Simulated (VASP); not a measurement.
# Pressure and energy of LaB6 (Pm-3m) against volume, from −6% to +6%, with PBE + rVV10

LaB6 resists being squeezed more strongly than being stretched, even when its volume changes by only a few per cent. A solid whose energy was a perfect parabola in volume would show no such difference, so the pressures must carry information about how the stiffness itself changes with volume. We ask how large this effect is, and whether two constants are enough to describe both pressure and energy. This matters wherever a volume has to be turned into a pressure, or a misfit into an elastic energy. Seven evenly scaled cells were calculated with PBE + rVV10. Volume changes are counted from the fitted equilibrium volume, positive pressure means compression, and energies are per atom above the lowest point of the series.

## Calculations

A cell from a diffraction database, relaxed at this level and then scaled evenly, fractional positions kept. VASP 6.6.1, plane waves with PAW, PBE + rVV10, cutoff 420 eV, k mesh 6×6×6, no spin polarisation, no spin-orbit coupling, static lattice. A Birch-Murnaghan fit to the energies has its minimum at 10.20 Å³ per atom.

Notes on method and selection:

- The pressure is that of a finite plane-wave basis, so it need not vanish exactly at the minimum of the energy.
- Only series whose fit has its minimum inside the range and an error under 0.5 meV per atom are shown.
- Where rows or columns differ in functional or spin-orbit coupling, non-spherical gradient terms in the PAW spheres (LASPH) may be on in some and off in others.
- Runs that did not converge, have known faults or may not be shown are not listed, and runs on Ansatz's PAW sets soft_1 and soft_2 are kept to separate tables.

Columns:

- volume change (%): volume relative to the fitted equilibrium volume.
- pressure (GPa): pressure from the stress tensor (positive: compressed).
- energy (meV/atom): energy per atom above the lowest point of the series.

Input lines of one member:

```
PREC = Accurate
ENCUT = 420
EDIFF = 1E-06
NELM = 100
ISMEAR = -1
SIGMA = 0.05
LREAL = .FALSE.
ALGO = Normal
GGA = PE
LUSE_VDW = .TRUE.
IVDW_NL = 2
BPARAM = 10
CPARAM = 0.0093
LASPH = .TRUE.
NBANDS = 21
```

Command (options for logging and memory left out): `mpirun -np 2 vasp_std`

## Results

| member | volume change (%) | pressure (GPa) | energy (meV/atom) |
| --- | --- | --- | --- |
| 9.58 Å³ | −6.09 | 12.58 | 23.3 |
| 9.78 Å³ | −4.09 | 8.03 | 10.2 |
| 9.99 Å³ | −2.10 | 3.90 | 2.6 |
| 10.19 Å³ | −0.10 | 0.14 | 0.0 |
| 10.39 Å³ | 1.90 | −3.30 | 2.0 |
| 10.60 Å³ | 3.90 | −6.42 | 8.2 |
| 10.80 Å³ | 5.90 | −9.27 | 18.1 |

pressure (GPa) against volume change (%):

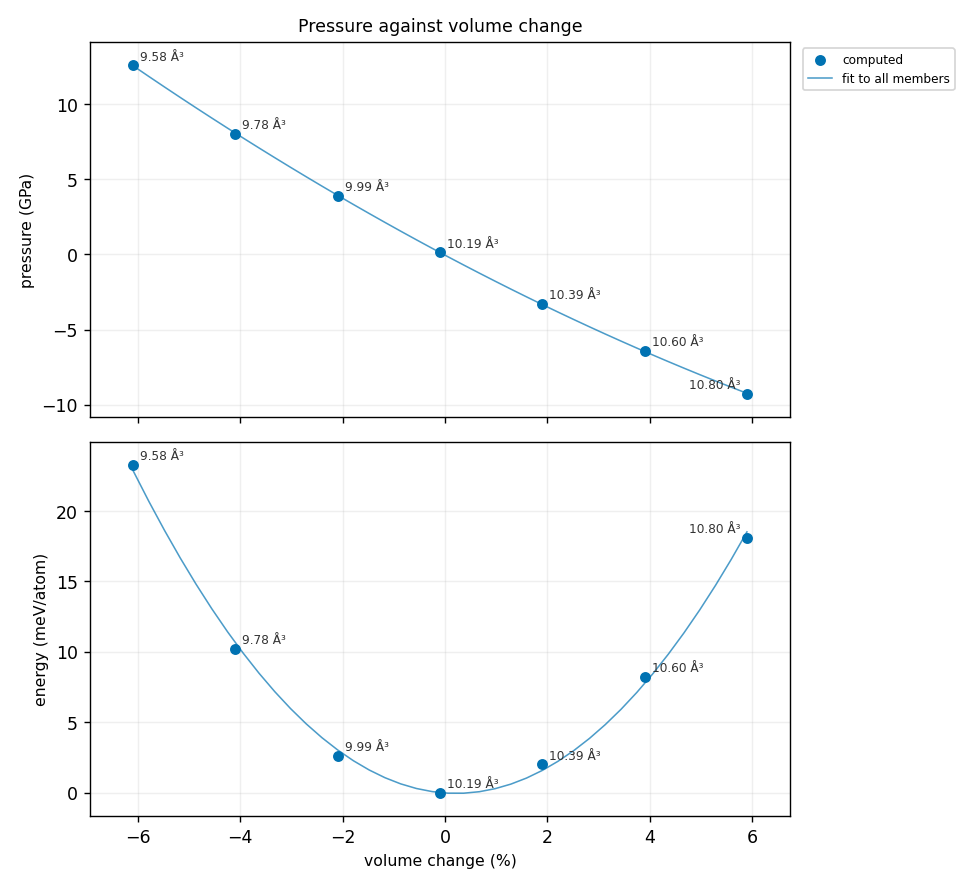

Least-squares fits to the whole series, with x = volume change (%); R² and errors in the fitted variable (y, or ln y where the fit is in ln y):

| y | members | fit | R² | rms residual | leave-one-out rms | the same for the mean of the others |
| --- | --- | --- | --- | --- | --- | --- |
| pressure (GPa) | 7 | y = −0.047554 − 1.8087 x + 0.042577 x² | 1.00 | 0.031 | 0.083 | 8.5 |
| energy (meV/atom) | 7 | y = −0.03050 − 0.2512 x + 0.5761 x² | 1.00 | 0.40 | 1.1 | 9.5 |

## The trend and its physics

The pressure falls from row to row as the cell grows, from 12.58 GPa in the smallest cell to −9.27 GPa in the largest. The fall becomes gentler on the way: about 2.3 GPa per per cent of volume between the two smallest cells, and 1.4 between the two largest. The energy rises on both sides of the 10.19 Å³ cell, more steeply under compression.

A model with two constants follows from three assumptions.

1. The energy per atom E is a smooth function of volume, and the pressure is its negative slope, P = −dE/dV.
2. The pressure is zero at the equilibrium volume V₀.
3. For small changes, the pressure needs only a linear and a square term in x, the volume change in per cent.

Assumptions 2 and 3 give

P = −b x + c x².

The constant b is the stiffness at equilibrium, and the bulk modulus is B = 100 b. The local stiffness is −dP/dx = b − 2c x, so a positive c makes the crystal stiffer when compressed and softer when expanded. In terms of the pressure derivative B′ of the bulk modulus, c = b (B′ + 1)/200.

The energy follows by integrating the pressure. Since dV = (V₀/100) dx,

E = (V₀/100) (b x²/2 − c x³/3).

With V₀ = 10.20 Å³ and 1 GPa Å³ = 6.24 meV, the prefactor is 10.20 × 6.24 / 100 = 0.6365 meV per GPa. The square term gives the bowl, and the cubic term tilts it, raising the compressed side and lowering the expanded one.

Part of c is geometric: even bonds that were perfect springs in length would give B′ = 1 and so a positive c, because length is not proportional to volume and the force acts on an area that grows with the cell. The rest is generally put down to the repulsion between overlapping electron shells, which grows rapidly as atoms approach, while the attraction that holds them together changes more slowly. In LaB6 the stiff part is the covalent boron network, whose bonds are all shortened or lengthened in proportion here.

## The model against the table

We fix the two constants on the end members, 9.58 Å³ and 10.80 Å³, so that the other cells are reached by interpolation. Dividing the pressure by −x gives b − c x:

- 9.58 Å³: 12.58 / 6.09 = 2.0657 = b + 6.09 c
- 10.80 Å³: 9.27 / 5.90 = 1.5712 = b − 5.90 c

Subtracting, c = (2.0657 − 1.5712) / (6.09 + 5.90) = 0.04124 GPa, and b = 1.5712 + 5.90 × 0.04124 = 1.8145 GPa. This corresponds to B = 181 GPa and B′ = 200 × 0.04124 / 1.8145 − 1 = 3.55.

The pressures of four other cells are then, in GPa:

- 9.78 Å³: 1.8145 × 4.09 + 0.04124 × 4.09² = 8.11; table 8.03
- 9.99 Å³: 1.8145 × 2.10 + 0.04124 × 2.10² = 3.99; table 3.90
- 10.39 Å³: −1.8145 × 1.90 + 0.04124 × 1.90² = −3.30; table −3.30
- 10.60 Å³: −1.8145 × 3.90 + 0.04124 × 3.90² = −6.45; table −6.42

The same constants give energies, although the energies entered only through the equilibrium volume. In meV per atom:

- 9.78 Å³: 0.6365 × (1.8145 × 4.09² / 2 + 0.04124 × 4.09³ / 3) = 10.3; table 10.2
- 10.60 Å³: 0.6365 × (1.8145 × 3.90² / 2 − 0.04124 × 3.90³ / 3) = 8.3; table 8.2

At the two ends the model gives, in meV per atom:

- 9.58 Å³: 0.6365 × (1.8145 × 6.09² / 2 + 0.04124 × 6.09³ / 3) = 23.4; table 23.3
- 10.80 Å³: 0.6365 × (1.8145 × 5.90² / 2 − 0.04124 × 5.90³ / 3) = 18.3; table 18.1

## Members off the line

Largest departures from the fit to the whole series:

| member | pressure (GPa) | fit | computed − fit | in rms residuals |
| --- | --- | --- | --- | --- |
| 9.99 Å³ | 3.90 | 3.94 | −0.04 | 1.2 |
| 10.60 Å³ | −6.42 | −6.45 | +0.03 | 1.1 |
| 9.58 Å³ | 12.58 | 12.55 | +0.03 | 1.1 |
| 10.80 Å³ | −9.27 | −9.24 | −0.03 | 1.1 |

The model pressure is too high by 0.08 GPa at 9.78 Å³, by 0.09 at 9.99 Å³ and by 0.04 at 10.19 Å³. On the expanded side it agrees at 10.39 Å³ and is too low by 0.03 GPa at 10.60 Å³. Two assumptions fail slightly.

The second fails because the finite plane-wave basis shifts the pressure. At 10.19 Å³ the model gives 1.8145 × 0.10 = 0.18 GPa, against 0.14 in the table, a shift of about −0.04 GPa.

The third fails because the series has a further term, −d x³. With the model pinned near x = ±6, this term leaves a departure (table minus model) of d x (36 − x²), negative under compression and positive under expansion. Its size can be read from the cells near ±2%, where the departures are −0.09 and 0.00 GPa. The basis shift is nearly the same in both, so half their difference belongs to the cubic term, and d = 0.09 / (2 × 2 × 32) = 0.0007 GPa. At 4% this gives 0.0007 × 4 × 20 = 0.06 GPa. The two errors therefore add in the compressed cells, while in the expanded ones they cancel near 2% and partly cancel near 4%.

A plain parabola for the energy does worse, with an rms residual of 0.40 meV per atom, because it has no cubic term to carry the asymmetry.

## Conclusions

Between −6.09% and +5.90%, two constants reproduce the pressures to within 0.1 GPa and the energies to within about 0.2 meV per atom. The change of stiffness is large: in the model, the pressure change per per cent of volume falls from 1.8145 + 2 × 0.04124 × 6.09 = 2.32 GPa in the smallest cell to 1.8145 − 2 × 0.04124 × 5.90 = 1.33 GPa in the largest. Guessing each pressure from the mean of the others would miss by 8.5 GPa.

No omitted effect that we know of rivals the full pressure range, but at least two probably exceed the misses of the model. Zero-point motion of the light boron atoms should add roughly 1 to 2 GPa at a given volume and so enlarge the equilibrium cell. Letting the boron atoms relax in each cell would lower the energy away from equilibrium and soften the crystal, reducing the size of the pressure at the ends by perhaps one or two tenths of a GPa.

[Logs are printed without paths, hosts, clocks, repeated set-up lines and the standing remarks that a program may print on its own settings, such as how far it seeks lower states.]
